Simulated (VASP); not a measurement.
# Valence-band splitting and top hole masses of InP (F-43m) under biaxial (111) strain, r2SCAN with spin-orbit coupling

Hole transport and optical polarisation in a strained InP layer depend on which valence band lies on top and how heavy it is along and across the layer. We examine how equal strain in the (111) plane splits the top valence levels at the zone centre, and how the mass of the top hole band differs between compression and tension. The levels are r2SCAN energies with spin-orbit coupling on LDA-relaxed cells, counted downward from the valence-band top of each cell. r2SCAN finds the unstrained LDA cell under compressive pressure, so the results describe a crystal somewhat smaller than its own equilibrium. The comparison is between strains; no measured splittings or masses are shown.

## Computational details

The start is a typed prototype cell. The crystal was relaxed with LDA. Equal strain is imposed in the (111) plane; the strain along the normal is adjusted until the normal stress vanishes, and the atoms are relaxed with LDA. VASP 6.6.1, plane waves with PAW, cutoff 450 eV, no spin polarisation. Band edges are single points at r2SCAN with spin-orbit coupling on these cells, k mesh 7×7×7, read on short lines of k points at the zone centre and through the valleys; energies are counted from the valence-band top at the zone centre. Each level is the mean of a Kramers pair; masses are fitted within 0.05 1/Å of the zone centre and are rough where two bands nearly touch. All levels use the PAW data sets made with LDA.

Notes on method and selection:

- Runs that did not converge, have known faults or may not be shown are not listed, and runs on Ansatz's PAW sets soft_1 and soft_2 are kept to separate tables.

Columns:

- strain (%): strain in the plane (tension positive).
- second level (eV): second valence level below the top at Γ.
- third level (eV): third valence level below the top at Γ.
- mass, normal (mₑ): mass of the top hole band along the normal.
- mass, plane (mₑ): mass of the top hole band in the plane.

Input lines of one member:

```
PREC = Accurate
ENCUT = 450
EDIFF = 1E-06
NELM = 100
ISMEAR = 0
SIGMA = 0.02
LREAL = .FALSE.
ALGO = Normal
METAGGA = R2SCAN
LASPH = .TRUE.
LNONCOLLINEAR = .TRUE.
NBANDS = 28
GGA_COMPAT = .FALSE.
LSORBIT = .TRUE.
KPAR = 2
```

Command (options for logging and memory left out): `mpirun -np 2 vasp_ncl`

## Computed values

| member | sign of the strain | strain (%) | second level (eV) | third level (eV) | mass, normal (mₑ) | mass, plane (mₑ) |
| --- | --- | --- | --- | --- | --- | --- |
| −2 % | compression | −2.0 | 0.05380 | 0.304 | 0.982 | 0.159 |
| −1.5 % | compression | −1.5 | ? | ? | ? | ? |
| −1 % | compression | −1.0 | 0.04450 | 0.172 | 0.968 | 0.160 |
| −0.5 % | compression | −0.5 | 0.03010 | 0.122 | 0.963 | 0.171 |
| 0 % | compression | 0.0 | 3.00×10⁻⁴ | 0.093 | 0.876 | 0.743 |
| 0 % | tension | 0.0 | 3.00×10⁻⁴ | 0.093 | 0.876 | 0.743 |
| +0.5 % | tension | 0.5 | 0.04240 | 0.123 | 0.073 | 0.539 |
| +1 % | tension | 1.0 | 0.08730 | 0.162 | 0.068 | 0.643 |
| +1.5 % | tension | 1.5 | 0.1308 | 0.203 | 0.070 | 0.729 |
| +2 % | tension | 2.0 | ? | ? | ? | ? |

Cells marked ? are withheld until the estimate has been made.

Least-squares fits to the members shown, with x = strain (%); R² and errors in the fitted variable (y, or ln y where the fit is in ln y):

| y | sign of the strain | members | fit | R² | rms residual | leave-one-out rms | the same for the mean of the others |
| --- | --- | --- | --- | --- | --- | --- | --- |
| third level (eV) | compression | 4 | y = 0.07820 − 0.1081 x | 0.98 | 0.012 | 0.036 | 0.11 |
| third level (eV) | tension | 4 | y = 0.08990 + 0.07380 x | 1.00 | 0.0029 | 0.0072 | 0.055 |
| second level (eV) | compression | 4 | y = 0.01036 − 0.02493 x | 0.83 | 0.0084 | 0.024 | 0.027 |
| second level (eV) | tension | 4 | y = −2.600×10⁻⁴ + 0.08728 x | 1.00 | 5.9×10⁻⁴ | 0.0012 | 0.065 |

## What drives the series

Either sign of strain lifts the near-degeneracy of the top two levels, but the second level responds differently. At 1 % tension it lies 0.0873 eV below the top, at 1 % compression only 0.0445 eV. In tension it descends almost linearly, by about 0.087 eV per percent. In compression it levels off, adding only 0.0538 − 0.0445 = 0.0093 eV between −1 % and −2 %, while the third level descends by 0.304 − 0.172 = 0.132 eV.

The cause is the competition between strain and spin-orbit coupling. Strain separates the p orbital along the normal from the two in the plane, and spin-orbit coupling mixes them. With $\Delta$ = 0.093 eV, the third level at zero strain, and a strain energy $q$ (positive in tension), the standard three-level model uses

$$R=\sqrt{\Delta^2+2\Delta q+9q^2}.$$

In tension the second level is $(3q-\Delta+R)/2$ and the third is $R$. In compression they are $(3|q|+\Delta\mp R)/2$, with the minus sign for the second. One value of $q$ per strain reproduces both levels of every strained row shown so far to within about 1 meV.

The top band changes character with the sign of strain. At 1 % its mass along the normal is 0.968 mₑ in compression and 0.068 mₑ in tension, a ratio of 0.968 / 0.068 = 14. In the plane the order is reversed: 0.160 mₑ in compression against 0.643 mₑ in tension. This fits a top state built from in-plane p orbitals in compression and mainly from the p orbital along the normal in tension, since a p band is light along its own lobes. The masses at zero strain belong to two nearly touching bands, split by a small residual strain, and are not a midpoint between the two regimes.

## A prediction

Plain estimates from the members shown:

- +2 % (tension), fit at x = 2.0: 0.237 eV (an extrapolation)
- −1.5 % (compression), fit at x = −1.5: 0.240 eV
- −1.5 % (compression), straight-line interpolation between −2 % and −1 %: w = (−1.5 − (−2.0)) / (−1.0 − (−2.0)) = 0.500, so 0.304 + 0.500 × (0.172 − 0.304) = 0.238 eV

The third level curves with strain, so a straight line is too high between −2 % and −1 % and too low beyond +1.5 %. We therefore interpolate or extrapolate $q$ per percent strain, which varies slowly, and return to the level through the model.

**+2 %.** The second level $d$ gives $q=d(d+\Delta)/(3d+2\Delta)$. Per percent strain, in eV, this is

- at +1 %: 0.0873 × (0.0873 + 0.093) / (3 × 0.0873 + 2 × 0.093) = 0.03514
- at +1.5 %: 0.1308 × (0.1308 + 0.093) / (3 × 0.1308 + 2 × 0.093) / 1.5 = 0.03374

Continuing this change gives 2 × 0.03374 − 0.03514 = 0.03234, so $q$ = 2 × 0.03234 = 0.0647 eV and

√(0.093² + 2 × 0.093 × 0.0647 + 9 × 0.0647²) = 0.242 eV.

As a trial, the same step is made from +0.5 % and +1 %. At +0.5 %, $q$ per percent is 0.0424 × (0.0424 + 0.093) / (3 × 0.0424 + 2 × 0.093) / 0.5 = 0.03666 eV, so at +1.5 % $q$ = 1.5 × (2 × 0.03514 − 0.03666) = 0.05043 eV. The model then gives √(0.093² + 2 × 0.093 × 0.05043 + 9 × 0.05043²) = 0.2023 eV, against 0.203 eV in the table.

**−1.5 %.** In compression the second and third levels add up to $3|q|+\Delta$. Per percent strain, $|q|$ is (0.0445 + 0.172 − 0.093) / 3 = 0.0412 eV at −1 % and (0.0538 + 0.304 − 0.093) / (3 × 2) = 0.0441 eV at −2 %. Their mean is (0.0412 + 0.0441) / 2 = 0.04265, so $|q|$ = 1.5 × 0.04265 = 0.0640 eV. With $q$ negative, $R$ = √(0.093² − 2 × 0.093 × 0.0640 + 9 × 0.0640²) = 0.1833 eV, hence

(3 × 0.0640 + 0.093 + 0.1833) / 2 = 0.234 eV.

As a trial, −1 % is interpolated between −2 % and −0.5 %. At −0.5 %, $|q|$ per percent is (0.0301 + 0.122 − 0.093) / (3 × 0.5) = 0.0394 eV, so at −1 % $|q|$ = 0.0394 + (0.0441 − 0.0394) / 3 = 0.04097 eV. Then $R$ = √(0.093² − 2 × 0.093 × 0.04097 + 9 × 0.04097²) = 0.1270 eV and the third level is (3 × 0.04097 + 0.093 + 0.1270) / 2 = 0.1715 eV, against 0.172 eV.

The two trials miss by 0.0007 and 0.0005 eV. With the rounding of the column, we take 0.001 eV as one standard deviation for both estimates.

**Committed estimate, +2 % (tension): third level = 0.242 ± 0.001 eV.**  
**Committed estimate, −1.5 % (compression): third level = 0.234 ± 0.001 eV.**

## Outcome

| member | sign of the strain | strain (%) | second level (eV) | third level (eV) | mass, normal (mₑ) | mass, plane (mₑ) |
| --- | --- | --- | --- | --- | --- | --- |
| −1.5 % | compression | −1.5 | 0.05070 | 0.234 | 0.968 | 0.159 |
| +2 % | tension | 2.0 | 0.1704 | 0.240 | 0.068 | 0.825 |

| member | estimate | third level (eV) | computed | estimate − computed | miss in error bars |
| --- | --- | --- | --- | --- | --- |
| +2 % (tension) | committed | 0.242 | 0.240 | +0.002 | 2.0 |
| +2 % (tension) | fit | 0.237 | 0.240 | −0.003 |  |
| −1.5 % (compression) | committed | 0.234 | 0.234 | 0.000 | 0.0 |
| −1.5 % (compression) | fit | 0.240 | 0.234 | +0.006 |  |
| −1.5 % (compression) | interpolation | 0.238 | 0.234 | +0.004 |  |

third level (eV) against strain (%):

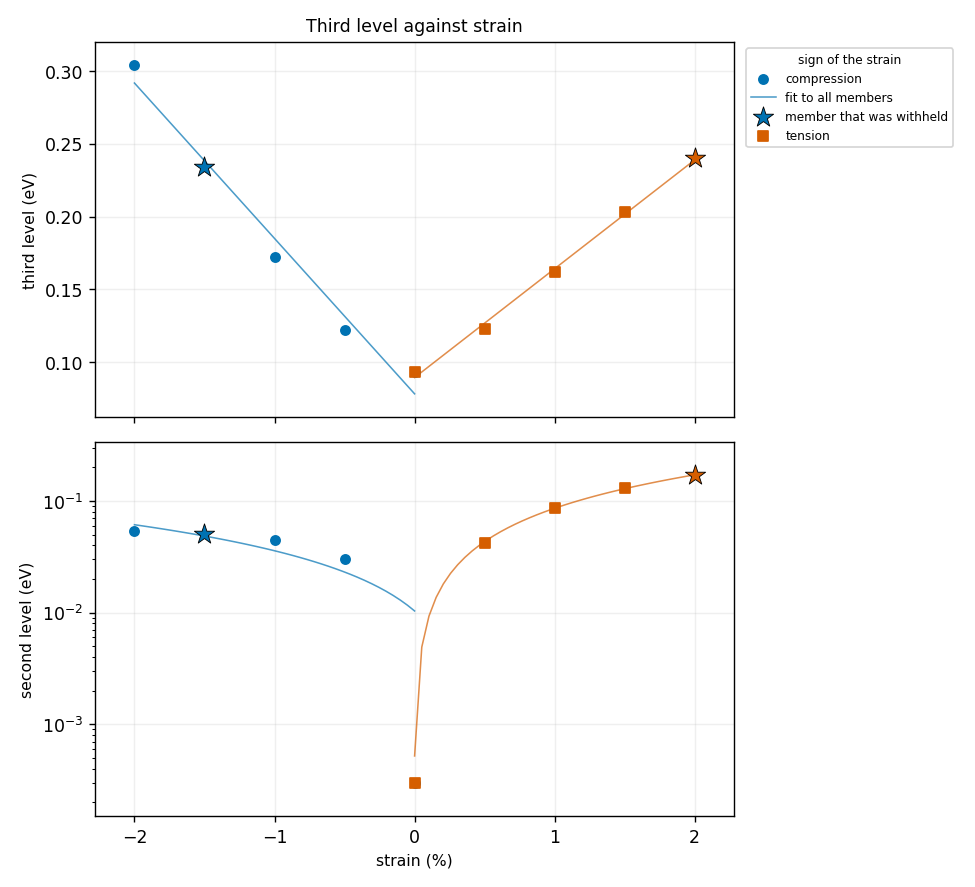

The estimate for −1.5 % agrees with the computed 0.234 eV to the printed digit, where the straight-line interpolation is 0.004 eV too high and the fit 0.006 eV. For +2 % we gave 0.242 eV against a computed 0.240 eV. That is outside our error bar, by two of them, though slightly nearer than the fit at 0.237 eV. The error bar was too narrow for an extrapolation, since it rested on a single trial for each sign of strain.

The three-level model held. The second level at +2 %, 0.1704 eV, corresponds to $q$ = 0.1704 × (0.1704 + 0.093) / (3 × 0.1704 + 2 × 0.093) = 0.0644 eV, close to the 0.0647 eV we had projected. With this value the model gives 0.241 eV, so part of the miss came from the projected $q$; the rest, about 0.001 eV, is the error of the model itself together with rounding.

The new masses support the same picture. In tension the in-plane mass of the top band rises from 0.539 mₑ at +0.5 % to 0.825 mₑ at +2 %, as expected if strain increasingly outweighs spin-orbit mixing and leaves a purer p orbital along the normal.

## Outliers

Least-squares fits to the whole series, with x = strain (%); R² and errors in the fitted variable (y, or ln y where the fit is in ln y):

| y | sign of the strain | members | fit | R² | rms residual | leave-one-out rms | the same for the mean of the others |
| --- | --- | --- | --- | --- | --- | --- | --- |
| third level (eV) | compression | 5 | y = 0.07820 − 0.1068 x | 0.98 | 0.011 | 0.024 | 0.095 |
| third level (eV) | tension | 5 | y = 0.08940 + 0.07480 x | 1.00 | 0.0027 | 0.0051 | 0.066 |
| second level (eV) | compression | 5 | y = 0.01036 − 0.02552 x | 0.85 | 0.0076 | 0.016 | 0.024 |
| second level (eV) | tension | 5 | y = 5.200×10⁻⁴ + 0.08572 x | 1.00 | 0.0012 | 0.0022 | 0.076 |

Largest departures from the fit to the whole series:

| member | sign of the strain | third level (eV) | fit | computed − fit | in rms residuals |
| --- | --- | --- | --- | --- | --- |
| +0.5 % | tension | 0.123 | 0.127 | −0.004 | 1.4 |
| 0 % | tension | 0.093 | 0.089 | +0.004 | 1.4 |
| 0 % | compression | 0.093 | 0.078 | +0.015 | 1.3 |
| −1 % | compression | 0.172 | 0.185 | −0.013 | 1.1 |

None of the members stands out; the largest departures, at 1.4 rms residuals or less, show that a straight line has the wrong shape. In compression the unstrained cell lies 0.015 eV above the line and −1 % lies 0.013 eV below it, because the third level descends slowly while spin-orbit coupling dominates and faster once strain does: by 0.122 − 0.093 = 0.029 eV over the first half percent and by 0.304 − 0.234 = 0.070 eV over the last. The same bend, with departures of only 0.004 eV, appears in tension at 0 % and +0.5 %.

## Closing remarks

Between −2 % and +2 %, compression puts a band on top that is heavy along the normal and light in the plane, and tension reverses this. With $q$ interpolated between neighbouring strains, the three-level model gives the third level to about 0.001 eV; a step of half a percent beyond the rows used is better given 0.002 eV.

For hole populations the second level matters. Taking the thermal energy at room temperature as roughly 0.026 eV, it lies 0.1704 / 0.026 = 6.6 thermal energies below the top at +2 %, but only 0.0538 / 0.026 = 2.1 at −2 %. Holes in the compressed layer therefore still occupy the second band noticeably, and the top-band mass alone does not describe their transport.

r2SCAN usually makes the gap of such semiconductors too small, which tends to lower the light masses, perhaps by ten per cent or more. That exceeds their whole range in tension, 0.068 to 0.073 mₑ, but not the contrast between light and heavy directions.

[Logs are printed without paths, hosts, clocks, repeated set-up lines and the standing remarks that a program may print on its own settings, such as how far it seeks lower states.]
